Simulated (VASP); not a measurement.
# Valence-band splitting at Γ and top-band hole masses of BAs (F-43m) under biaxial (110) strain, r2SCAN with spin-orbit coupling

A p-type channel of BAs on a mismatched substrate is strained whether or not the designer wants it. Strain can help such a channel, because it separates hole bands that otherwise scatter into each other, and it can hurt if the band left on top is heavy along the current. I therefore follow the three highest valence levels at Γ, and the mass of the top band, from 2 % compression to 2 % tension in the (110) plane. The levels are calculated with r2SCAN and spin-orbit coupling on LDA cells, and each is given as a depth below the valence-band top at the same strain. Masses are in units of the free-electron mass.

## Computational details

The start is a typed prototype cell. The crystal was relaxed with LDA. Equal strain is imposed in the (110) plane; the strain along the normal is adjusted until the normal stress vanishes, and the atoms are relaxed with LDA. VASP 6.6.1, plane waves with PAW, cutoff 480 eV, no spin polarisation. Band edges are single points at r2SCAN with spin-orbit coupling on these cells, k mesh 9×9×9, read on short lines of k points at the zone centre and through the valleys; energies are counted from the valence-band top at the zone centre. Each level is the mean of a Kramers pair; masses are fitted within 0.05 1/Å of the zone centre and are rough where two bands nearly touch. All levels use the PAW data sets made with LDA.

Notes on method and selection:

- Runs that did not converge, have known faults or may not be shown are not listed, and runs on Ansatz's PAW sets soft_1 and soft_2 are kept to separate tables.

Columns:

- strain (%): strain in the plane (tension positive).
- second level (eV): second valence level below the top at Γ.
- third level (eV): third valence level below the top at Γ.
- mass, normal (mₑ): mass of the top hole band along the normal.
- mass, plane (mₑ): mass of the top hole band in the plane.

## Results

| member | sign of the strain | strain (%) | second level (eV) | third level (eV) | mass, normal (mₑ) | mass, plane (mₑ) |
| --- | --- | --- | --- | --- | --- | --- |
| −2 % | compression | −2.0 | 0.1001 | 0.381 | 0.337 | 0.158 |
| −1.5 % | compression | −1.5 | ? | ? | ? | ? |
| −1 % | compression | −1.0 | 0.0667 | 0.276 | 0.346 | 0.157 |
| −0.5 % | compression | −0.5 | 0.0371 | 0.239 | 0.361 | 0.152 |
| 0 % | compression | 0.0 | 0.0000 | 0.215 | 0.443 | 0.443 |
| 0 % | tension | 0.0 | 0.0000 | 0.215 | 0.443 | 0.443 |
| +0.5 % | tension | 0.5 | 0.0429 | 0.242 | 0.131 | 0.503 |
| +1 % | tension | 1.0 | 0.0889 | 0.278 | 0.131 | 0.610 |
| +1.5 % | tension | 1.5 | 0.1378 | 0.321 | 0.128 | 0.756 |
| +2 % | tension | 2.0 | 0.1834 | 0.364 | 0.125 | 0.840 |

Cells marked ? are withheld until the estimate has been made.

Least-squares fits to the members shown, with x = strain (%); R² and errors in the fitted variable (y, or ln y where the fit is in ln y):

| y | sign of the strain | members | fit | R² | rms residual | leave-one-out rms | the same for the mean of the others |
| --- | --- | --- | --- | --- | --- | --- | --- |
| third level (eV) | compression | 4 | y = 0.2036 − 0.08474 x | 0.98 | 0.0099 | 0.029 | 0.085 |
| third level (eV) | tension | 5 | y = 0.2086 + 0.07540 x | 0.99 | 0.0048 | 0.0098 | 0.067 |
| second level (eV) | compression | 4 | y = 0.008160 − 0.04893 x | 0.96 | 0.0073 | 0.021 | 0.049 |
| second level (eV) | tension | 5 | y = −0.001740 + 0.09234 x | 1.00 | 0.0014 | 0.0025 | 0.082 |

## What drives the series

Both signs of strain lift the degeneracy of the top, but not in the same way. In tension the second level drops almost linearly, by 0.092 eV per % in the fit. In compression it starts at 0.0371 / 0.5 = 0.074 eV per % and slows to (0.1001 − 0.0667) / 1.0 = 0.033 eV per % between −1 % and −2 %. The third level moves away from the top on both sides, by similar amounts.

The p orbitals of the valence band explain the difference. Tension in the plane shortens the crystal along the normal and raises the orbital that points along it, so one level pulls away from the other two. Compression raises the two in-plane orbitals together and lowers the normal one. The upper two levels are then held apart mainly by spin-orbit coupling, which does not grow with strain, while the third keeps falling.

The masses fit this picture, since a p band is light along its own lobes and heavy across them. The mass along the normal is smaller at +2 % than at −2 % by a factor 0.337 / 0.125 = 2.7, and the mass in the plane is larger by a factor 0.840 / 0.158 = 5.3. Along the tabulated in-plane direction, compression therefore gives the lighter top band. The two in-plane axes are not equivalent, however, so the tabulated in-plane mass does not hold for every direction.

Except for the in-plane mass in tension, most of the change from zero strain is already present at 0.5 % of either sign, because a small splitting is enough to select one band. After that the compressed masses hardly move, as expected for a top state that is already almost purely in-plane. In tension the in-plane mass still climbs from 0.503 to 0.840, because strain mixes the top state with the split-off state and makes it more purely normal in character.

## A prediction

Plain estimates from the members shown:

- −1.5 % (compression), fit at x = −1.5: 0.331 eV
- −1.5 % (compression), straight-line interpolation between −2 % and −1 %: w = (−1.5 − (−2.0)) / (−1.0 − (−2.0)) = 0.500, so 0.381 + 0.500 × (0.276 − 0.381) = 0.329 eV

The third level steepens with compression, so the straight-line value of 0.329 eV should be too deep. I use the p-orbital model with the normal as its only axis. Let $\Delta$ = 0.215 eV be the spin-orbit splitting at zero strain, and $u$ the size of the splitting that strain alone would make between the in-plane and normal orbitals. Then the second and third depths in compression add up to $\Delta + u$, and the third is

$$E_3=\tfrac12\left[\Delta+u+\sqrt{\Delta^2-\tfrac23u\Delta+u^2}\right].$$

The rows give $u$ = 0.0667 + 0.276 − 0.215 = 0.1277 eV at −1 % and 0.1001 + 0.381 − 0.215 = 0.2661 eV at −2 %. Per % of strain these are 0.1277 and 0.2661 / 2.0 = 0.1331, with a mean of (0.1277 + 0.1331) / 2 = 0.1304, so at −1.5 % $u$ = 1.5 × 0.1304 = 0.1956 eV. Under the root stands 0.215 × 0.215 − 2 × 0.1956 × 0.215 / 3 + 0.1956 × 0.1956 = 0.05645 eV². Its root is 0.05645 / 0.2376 = 0.2376 eV, and the third level lies at (0.215 + 0.1956 + 0.2376) / 2 = 0.324 eV.

As a trial I predicted −1 % from −0.5 % and −2 %, interpolating $u$ per % in the same way. At −0.5 % the strain term per % is (0.0371 + 0.239 − 0.215) / 0.5 = 0.1222, so at −1 % it is 0.1222 + (0.1331 − 0.1222) / 3 = 0.1258. With this the formula puts the third level within about 0.001 eV of the tabulated 0.276 eV, where a straight line between the same two rows gives 0.239 + (0.381 − 0.239) / 3 = 0.286 eV. The tension form, $E_3=\sqrt{\Delta^2+\tfrac23u\Delta+u^2}$, reproduces the row at +1.5 % from its neighbours to about 0.001 eV. The model neglects the inequivalence of the in-plane axes, and with $u$ taken from the third level it places the second level, which in tension lies at $(E_3-\Delta+u)/2$, about 0.006 eV too deep at +2 %. With misses of about 0.001 eV for the third level and some allowance for that neglect, I take 0.002 eV as the error.

**Committed estimate, −1.5 % (compression): third level = 0.324 ± 0.002 eV.**

## How the estimate fared

| member | sign of the strain | strain (%) | second level (eV) | third level (eV) | mass, normal (mₑ) | mass, plane (mₑ) |
| --- | --- | --- | --- | --- | --- | --- |
| −1.5 % | compression | −1.5 | 0.0867 | 0.323 | 0.339 | 0.158 |

| member | estimate | third level (eV) | computed | estimate − computed | miss in error bars |
| --- | --- | --- | --- | --- | --- |
| −1.5 % (compression) | committed | 0.324 | 0.323 | +0.001 | 0.5 |
| −1.5 % (compression) | fit | 0.331 | 0.323 | +0.008 |  |
| −1.5 % (compression) | interpolation | 0.329 | 0.323 | +0.006 |  |

third level (eV) against strain (%):

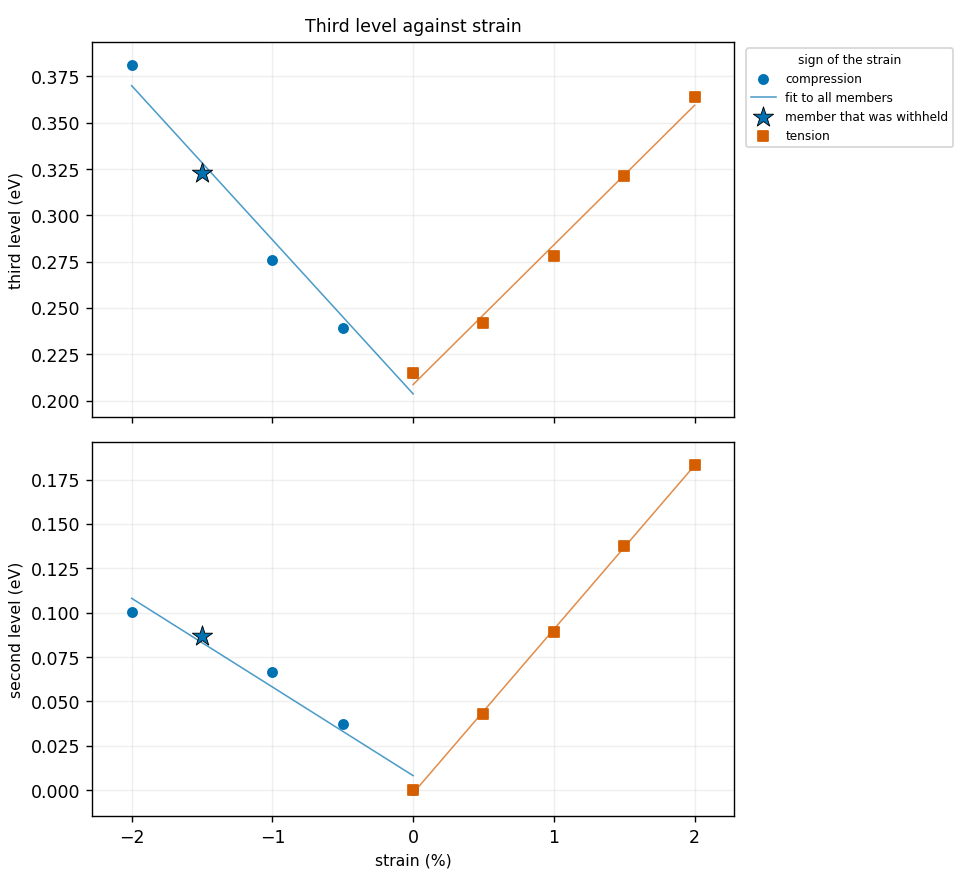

The estimate of 0.324 eV is 0.001 eV deeper than the computed 0.323 eV, inside its error bar of 0.002 eV. It did better than the straight line between the neighbours, which is 0.006 eV too deep, and the fit, which is 0.008 eV too deep.

The argument from curvature was right: the third level falls faster as compression grows, so a chord between two rows lies too deep. The same formula also fixes the second level, which I had not used as a test. Since the two depths add up to $\Delta + u$, it should lie at 0.215 + 0.1956 − 0.324 = 0.087 eV, against the computed 0.0867 eV. One strain term and the unstrained spin-orbit splitting thus account for both levels at this strain. That supports the picture of two in-plane p orbitals raised together and parted mainly by spin-orbit coupling. It says little about the inequivalence of the two in-plane axes, since part of that effect can hide in the fitted strain term.

## Members off the line

Least-squares fits to the whole series, with x = strain (%); R² and errors in the fitted variable (y, or ln y where the fit is in ln y):

| y | sign of the strain | members | fit | R² | rms residual | leave-one-out rms | the same for the mean of the others |
| --- | --- | --- | --- | --- | --- | --- | --- |
| third level (eV) | compression | 5 | y = 0.2036 − 0.08320 x | 0.98 | 0.0093 | 0.019 | 0.074 |
| third level (eV) | tension | 5 | y = 0.2086 + 0.07540 x | 0.99 | 0.0048 | 0.0098 | 0.067 |
| second level (eV) | compression | 5 | y = 0.008160 − 0.04996 x | 0.96 | 0.0068 | 0.014 | 0.045 |
| second level (eV) | tension | 5 | y = −0.001740 + 0.09234 x | 1.00 | 0.0014 | 0.0025 | 0.082 |

Largest departures from the fit to the whole series:

| member | sign of the strain | third level (eV) | fit | computed − fit | in rms residuals |
| --- | --- | --- | --- | --- | --- |
| 0 % | tension | 0.215 | 0.209 | +0.006 | 1.3 |
| +1 % | tension | 0.278 | 0.284 | −0.006 | 1.2 |
| 0 % | compression | 0.215 | 0.204 | +0.011 | 1.2 |
| −2 % | compression | 0.381 | 0.370 | +0.011 | 1.2 |

No row stands out, as the largest departure from the fits is 1.3 rms residuals. The departures are those of a straight line laid through a curve: the third level is deeper than the line at 0 % and at 2 % of either sign, and shallower at ±1 %. The cause is spin-orbit coupling, which sets most of the third level's depth at small strain and gives way to the strain term as that grows.

## Summary

Between −2 % and +2 %, either sign of strain splits the valence-band top and pushes the third level down. At −1.5 % the p-orbital formula gave the third level from its neighbours to about 0.001 eV, against about 0.006 eV by straight interpolation.

For a device near room temperature, where the thermal energy is roughly 0.026 eV, 1 % compression parts the upper two levels by 0.0667 / 0.026 = 2.6 thermal energies and 1 % tension by 0.0889 / 0.026 = 3.4. Tension separates them more, but its top band is 0.610 / 0.157 = 3.9 times heavier in the plane. That ratio holds for the tabulated mass and not for every in-plane direction.

I know of no omitted effect on these splittings as large as the third level's spread of 0.381 − 0.215 = 0.166 eV. The usual underestimate of the band gap by r2SCAN, some tenths of an eV, is larger but mainly shifts the conduction band.
